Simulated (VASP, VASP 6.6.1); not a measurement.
# Lattice constants of tetragonal WSi₂ from PBEsol and PBE, with tests of mesh, cutoff and spin-orbit coupling

## Starting point

The reference is a powder X-ray diffraction measurement on Czochralski-grown WSi₂, reported in "Giant magnetoresistance, Fermi surface topology, Shoenberg effect and vanishing quantum oscillations in type-II Dirac se" (2022, arXiv:2202.05362). It gives a = 3.21395 Å and c = 7.83128 Å for the conventional body-centred tetragonal cell. The temperature is not given with the values; we take them as room-temperature constants, the usual case for powder work of this kind. Diffraction yields the lattice constants directly from line positions, so little interpretation stands between the observation and the quantity we compute. The two constants alone cannot tell how closely the melt-grown material keeps to the ideal composition.

| compared with | measured | method |
| --- | --- | --- |
| lattice constant a of the conventional cell (Å) | 3.21395 | powder X-ray diffraction |
| lattice constant c of the conventional cell (Å) | 7.83128 | powder X-ray diffraction |

Conditions are those given with the value in the passage it was taken from; "not stated" means there, and the paper may say more elsewhere. The values are a selection: others, judged unlike or outlying, were left out beforehand.

## Choices

We want both lattice constants of WSi₂ from a full relaxation of the I4/mmm cell, each within 0.5 % of experiment. That limit is tight enough to expose the error of roughly one per cent that a less suitable functional can make. It also stays above the effect of the missing zero-point motion and thermal expansion, which for a stiff, refractory silicide we put at very roughly 0.2 % in length. The static cell should therefore come out slightly smaller than the measured one.

PBEsol is our choice, since it was built for the equilibrium volumes of densely packed solids and usually does well for 5d metals and their compounds. LDA would save little time and tends to give cells that are too small; PBE costs the same and tends to err the other way. Hybrid functionals are a poor bargain for a metal.

The numerical risk lies in the Brillouin-zone sampling: WSi₂ has a Fermi surface, and we use narrow Gaussian smearing. We therefore start from a fairly dense mesh. After the main relaxation we test a denser mesh and a higher cutoff, then look at spin-orbit coupling, which is strong in tungsten, and at PBE for scale. The starting cell is a published refinement that agrees closely with the reference, stretched by 3 % in volume so that the relaxation has to find its own way back.

System: Si2W; I4/mmm (No. 139), 3 atoms in the cell; conventional a = 3.214, c = 7.830 A, from a published structure refinement (COD).

## 1. PBEsol relaxation of the full cell

We begin with PBEsol at a 450 eV cutoff and a 14×14×14 mesh, relaxed twice so that the plane-wave basis is rebuilt for the new cell. We expect both constants to fall a little below experiment.

**Run 1.** VASP 6.6.1: PBEsol; 450 eV, 14x14x14 k mesh; cell and atoms relaxed, relaxed twice, LASPH on.

Key lines of the input:
```
ALGO = Normal
EDIFF = 1E-06
EDIFFG = -0.006
ENCUT = 450
GGA = PS
IBRION = 2
ISIF = 3
ISMEAR = 0
LASPH = .TRUE.
NBANDS = 13
NELM = 100
NSW = 50
PREC = Accurate
SIGMA = 0.05
KPOINTS: Gamma, 14 14 14
PAW data sets: W Si (PBE 64)
```

Command:
```
mpirun -np 8 vasp_std
```

Selected lines of the output:
```
[second pass]
   1 F= -.26724690E+02 E0= -.26724542E+02  d E =-.267247E+02
 reached required accuracy - stopping structural energy minimisation
```

Converged; 53 s on 8 cores of Intel Xeon 6975P-C (Granite Rapids), shared host (all steps together).

| quantity | run 1 | measured | deviation |
| --- | --- | --- | --- |
| lattice constant a of the conventional cell (Å) | 3.2019 | 3.21395 | −0.0120 (−0.4 %) |
| lattice constant c of the conventional cell (Å) | 7.8125 | 7.83128 | −0.0188 (−0.2 %) |
| volume of the conventional cell (Å³) | 80.10 |  |  |
| space group at the end | I4/mmm |  |  |
| pressure left at the end (GPa) | −0.0016 |  |  |

Both constants lie within the target and below experiment, the side on which a static cell should fall. The short axis is the more critical one: it is 0.4 % too small, against 0.2 % for the long axis. Our rough allowance for thermal and zero-point expansion would account for about half of the deficit in a and most of that in c.

The second pass stopped after its first step, so the geometry was already settled within the force threshold. This says nothing about the mesh or the cutoff, and a shift of a few thousandths of an ångström in a would be enough to change the verdict.

## 2. Denser mesh and higher cutoff

We therefore tighten the two settings separately, each against the first relaxation: a 20×20×20 mesh at the same cutoff, and 600 eV at the same mesh. The mesh is the greater concern in a metal with narrow smearing. We expect both shifts to be well below the 0.4 % deviation in a.

**Run 2.** VASP 6.6.1: PBEsol; 450 eV, 20x20x20 k mesh; cell and atoms relaxed, relaxed twice, LASPH on.

Key lines of the input, as changed from run 1:
```diff
- KPOINTS: Gamma, 14 14 14
+ KPOINTS: Gamma, 20 20 20
```

Converged; 2.1 min of wall time (all steps together).

**Run 3.** VASP 6.6.1: PBEsol; 600 eV, 14x14x14 k mesh; cell and atoms relaxed, relaxed twice, LASPH on.

Key lines of the input, as changed from run 1:
```diff
- ENCUT = 450
+ ENCUT = 600
```

Selected lines of the output:
```
   8 F= -.26724855E+02 E0= -.26724707E+02  d E =0.630025E-05
   9 F= -.26724885E+02 E0= -.26724738E+02  d E =-.237931E-04
  10 F= -.26724885E+02 E0= -.26724739E+02  d E =-.238944E-04
  11 F= -.26724890E+02 E0= -.26724742E+02  d E =-.487909E-05
[second pass]
   1 F= -.26724785E+02 E0= -.26724638E+02  d E =-.267248E+02
 reached required accuracy - stopping structural energy minimisation
  external PRESSURE =      -0.0883173 kB  Pullay stress =       0.0000000 kB
  volume of cell :       40.05
      direct lattice vectors                 reciprocal lattice vectors
    -1.601007291  1.601007291  3.906337621     0.000000000  0.312303387  0.127997129
     1.601007291 -1.601007291  3.906337621     0.312303387  0.000000000  0.127997129
     1.601007291  1.601007291 -3.906337621     0.312303387  0.312303387  0.000000000
```

Converged; 2.2 min of wall time (all steps together).

| quantity | run 2 | run 3 | measured |
| --- | --- | --- | --- |
| lattice constant a of the conventional cell (Å) | 3.2017 | 3.2020 | 3.21395 |
| lattice constant c of the conventional cell (Å) | 7.8127 | 7.8127 | 7.83128 |
| volume of the conventional cell (Å³) | 80.09 | 80.10 |  |
| space group at the end | I4/mmm | I4/mmm |  |
| pressure left at the end (GPa) | −0.0013 | −0.0088 |  |

Neither setting matters at this level. The denser mesh changes a by −0.0002 Å and the higher cutoff by +0.0001 Å; c rises by 0.0002 Å in both cases. Differences this small may come from the stopping threshold of the relaxations, so we assign them to neither mesh nor cutoff. They are far below the 0.0120 Å by which a falls short of experiment, and the PBEsol result stays within the target for both constants.

## 3. Spin-orbit coupling and PBE for scale

Tungsten is heavy enough that spin-orbit coupling deserves a direct test. We relax the cell with and without it on the same 12×12×12 mesh, so that the change of mesh does not enter the comparison. We expect a shift of the lattice constants well below 0.1 %, because the coupling mostly rearranges bands without much effect on the bonding.

Alongside, we relax the cell with PBE at the settings of the first PBEsol run. It should give a larger cell, probably above experiment, and so show how much of the remaining deviation lies within the choice of functional.

**Run 4.** VASP 6.6.1: PBEsol; 450 eV, 12x12x12 k mesh; cell and atoms relaxed, relaxed twice, LASPH on.

Key lines of the input, as changed from run 1:
```diff
- KPOINTS: Gamma, 14 14 14
+ KPOINTS: Gamma, 12 12 12
```

Converged; 48 s of wall time (all steps together).

**Run 5.** VASP 6.6.1: PBEsol with spin-orbit coupling; 450 eV, 12x12x12 k mesh; cell and atoms relaxed, relaxed twice, LASPH on.

Key lines of the input, as changed from run 4:
```diff
+ GGA_COMPAT = .FALSE.
- NBANDS = 13
+ LMAXMIX = 4
+ LNONCOLLINEAR = .TRUE.
+ LSORBIT = .TRUE.
+ MAGMOM = 0 0 0 0 0 0 0 0 0
+ NBANDS = 26
```

Command:
```
mpirun -np 8 vasp_ncl
```

Converged; 4.3 min of wall time (all steps together).

**Run 6.** VASP 6.6.1: PBE; 450 eV, 14x14x14 k mesh; cell and atoms relaxed, relaxed twice, LASPH on.

Key lines of the input, as changed from run 1:
```diff
- GGA = PS
+ GGA = PE
```

Converged; 47 s of wall time (all steps together).

| quantity | run 4 | run 5 | run 6 | measured |
| --- | --- | --- | --- | --- |
| lattice constant a of the conventional cell (Å) | 3.2010 | 3.2009 | 3.2262 | 3.21395 |
| lattice constant c of the conventional cell (Å) | 7.8147 | 7.8130 | 7.8599 | 7.83128 |
| volume of the conventional cell (Å³) | 80.07 | 80.05 | 81.81 |  |
| space group at the end | I4/mmm | I4/mmm | I4/mmm |  |
| pressure left at the end (GPa) | 0.0070 | 0.0157 | −0.0236 |  |

Switching on spin-orbit coupling shortens a by no more than 0.0002 Å and c by 0.0017 Å, about 0.02 % of the long axis. The number of bands doubles only because each band now holds one electron instead of two. Two further settings, GGA_COMPAT and LMAXMIX, changed in the same step, so this small shift is not strictly that of the coupling alone. In any case it does not close the gap to experiment, and both constants stay within the target.

PBE gives the larger cell we expected, with a about 0.012 Å and c about 0.029 Å above the measured values. Both deviations are just under 0.4 %, so PBE meets the target too. In a the two functionals miss by almost the same amount on opposite sides; in c PBEsol is closer. Thermal and zero-point expansion would enlarge both computed cells, which brings PBEsol nearer to experiment and takes PBE further away.

## Table of results

| run | settings | lattice constant a of the conventional cell (Å) | deviation | lattice constant c of the conventional cell (Å) | deviation | cost |
| --- | --- | --- | --- | --- | --- | --- |
| 1 | PBEsol, 450 eV, 14x14x14 k mesh | 3.2019 | −0.0120 (−0.4 %) | 7.8125 | −0.0188 (−0.2 %) | 7.1 core-min |
| 2 | PBEsol, 450 eV, 20x20x20 k mesh | 3.2017 | −0.0122 (−0.4 %) | 7.8127 | −0.0186 (−0.2 %) | 17 core-min |
| 3 | PBEsol, 600 eV, 14x14x14 k mesh | 3.2020 | −0.0119 (−0.4 %) | 7.8127 | −0.0186 (−0.2 %) | 17 core-min |
| 4 | PBEsol, 450 eV, 12x12x12 k mesh | 3.2010 | −0.0129 (−0.4 %) | 7.8147 | −0.0166 (−0.2 %) | 6.4 core-min |
| 5 | PBEsol with spin-orbit coupling, 450 eV, 12x12x12 k mesh | 3.2009 | −0.0131 (−0.4 %) | 7.8130 | −0.0183 (−0.2 %) | 35 core-min |
| 6 | PBE, 450 eV, 14x14x14 k mesh | 3.2262 | +0.0122 (+0.4 %) | 7.8599 | +0.0286 (+0.4 %) | 6.3 core-min |
|  | measured | 3.21395 |  | 7.83128 |  |  |

The runs in order, against the measurement:

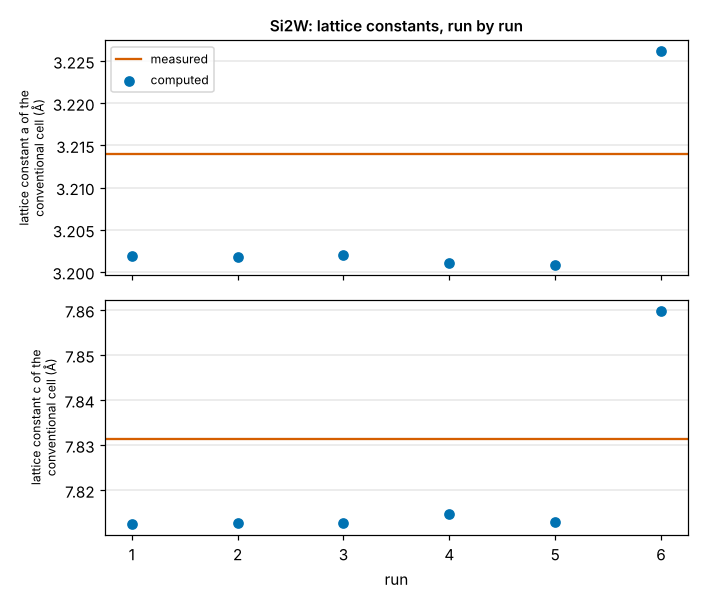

## Judgement

PBEsol meets the target for both lattice constants of WSi₂. At 450 eV and a 14×14×14 mesh, a comes out 0.4 % and c 0.2 % below the measured values, for about 7 core-minutes.

The denser mesh and the higher cutoff each moved the constants by no more than 0.0002 Å, so the result does not hang on either setting, despite the narrow smearing used for a metal. The spin-orbit comparison, made on a somewhat coarser mesh, showed little change: c shortened by 0.0017 Å and a hardly moved. It was still worth making for a compound of tungsten.

PBE also meets the target as computed, with both constants 0.4 % too large. The missing thermal and zero-point expansion separates the two functionals. With our rough allowance of 0.2 % in length, PBEsol would be left about 0.2 % short in a and close to experiment in c, whereas PBE would move to about 0.6 % too large in both, outside the target. Part of PBE's agreement is therefore a cancellation between too large a static cell and the absence of expansion. For PBEsol, the sign of the deviation is the one a static cell should show.

What remains in a is probably a slight overbinding by PBEsol, though this is conjecture. A small departure of the melt-grown material from ideal composition could also contribute. The results shown here cannot separate the two, nor do they explain why a falls further short than c.

[Logs are printed without paths, hosts, clocks, repeated set-up lines and the standing remarks that a program may print on its own settings, such as how far it seeks lower states.]

[The runs shown are a pick from a larger set of finished runs; failed, doubtful and other runs were left out of it ahead of writing. So were measured values far from every level or from commonly accepted values, and agreement can look better than it is. Lines of input and output are excerpts and may be shortened.]
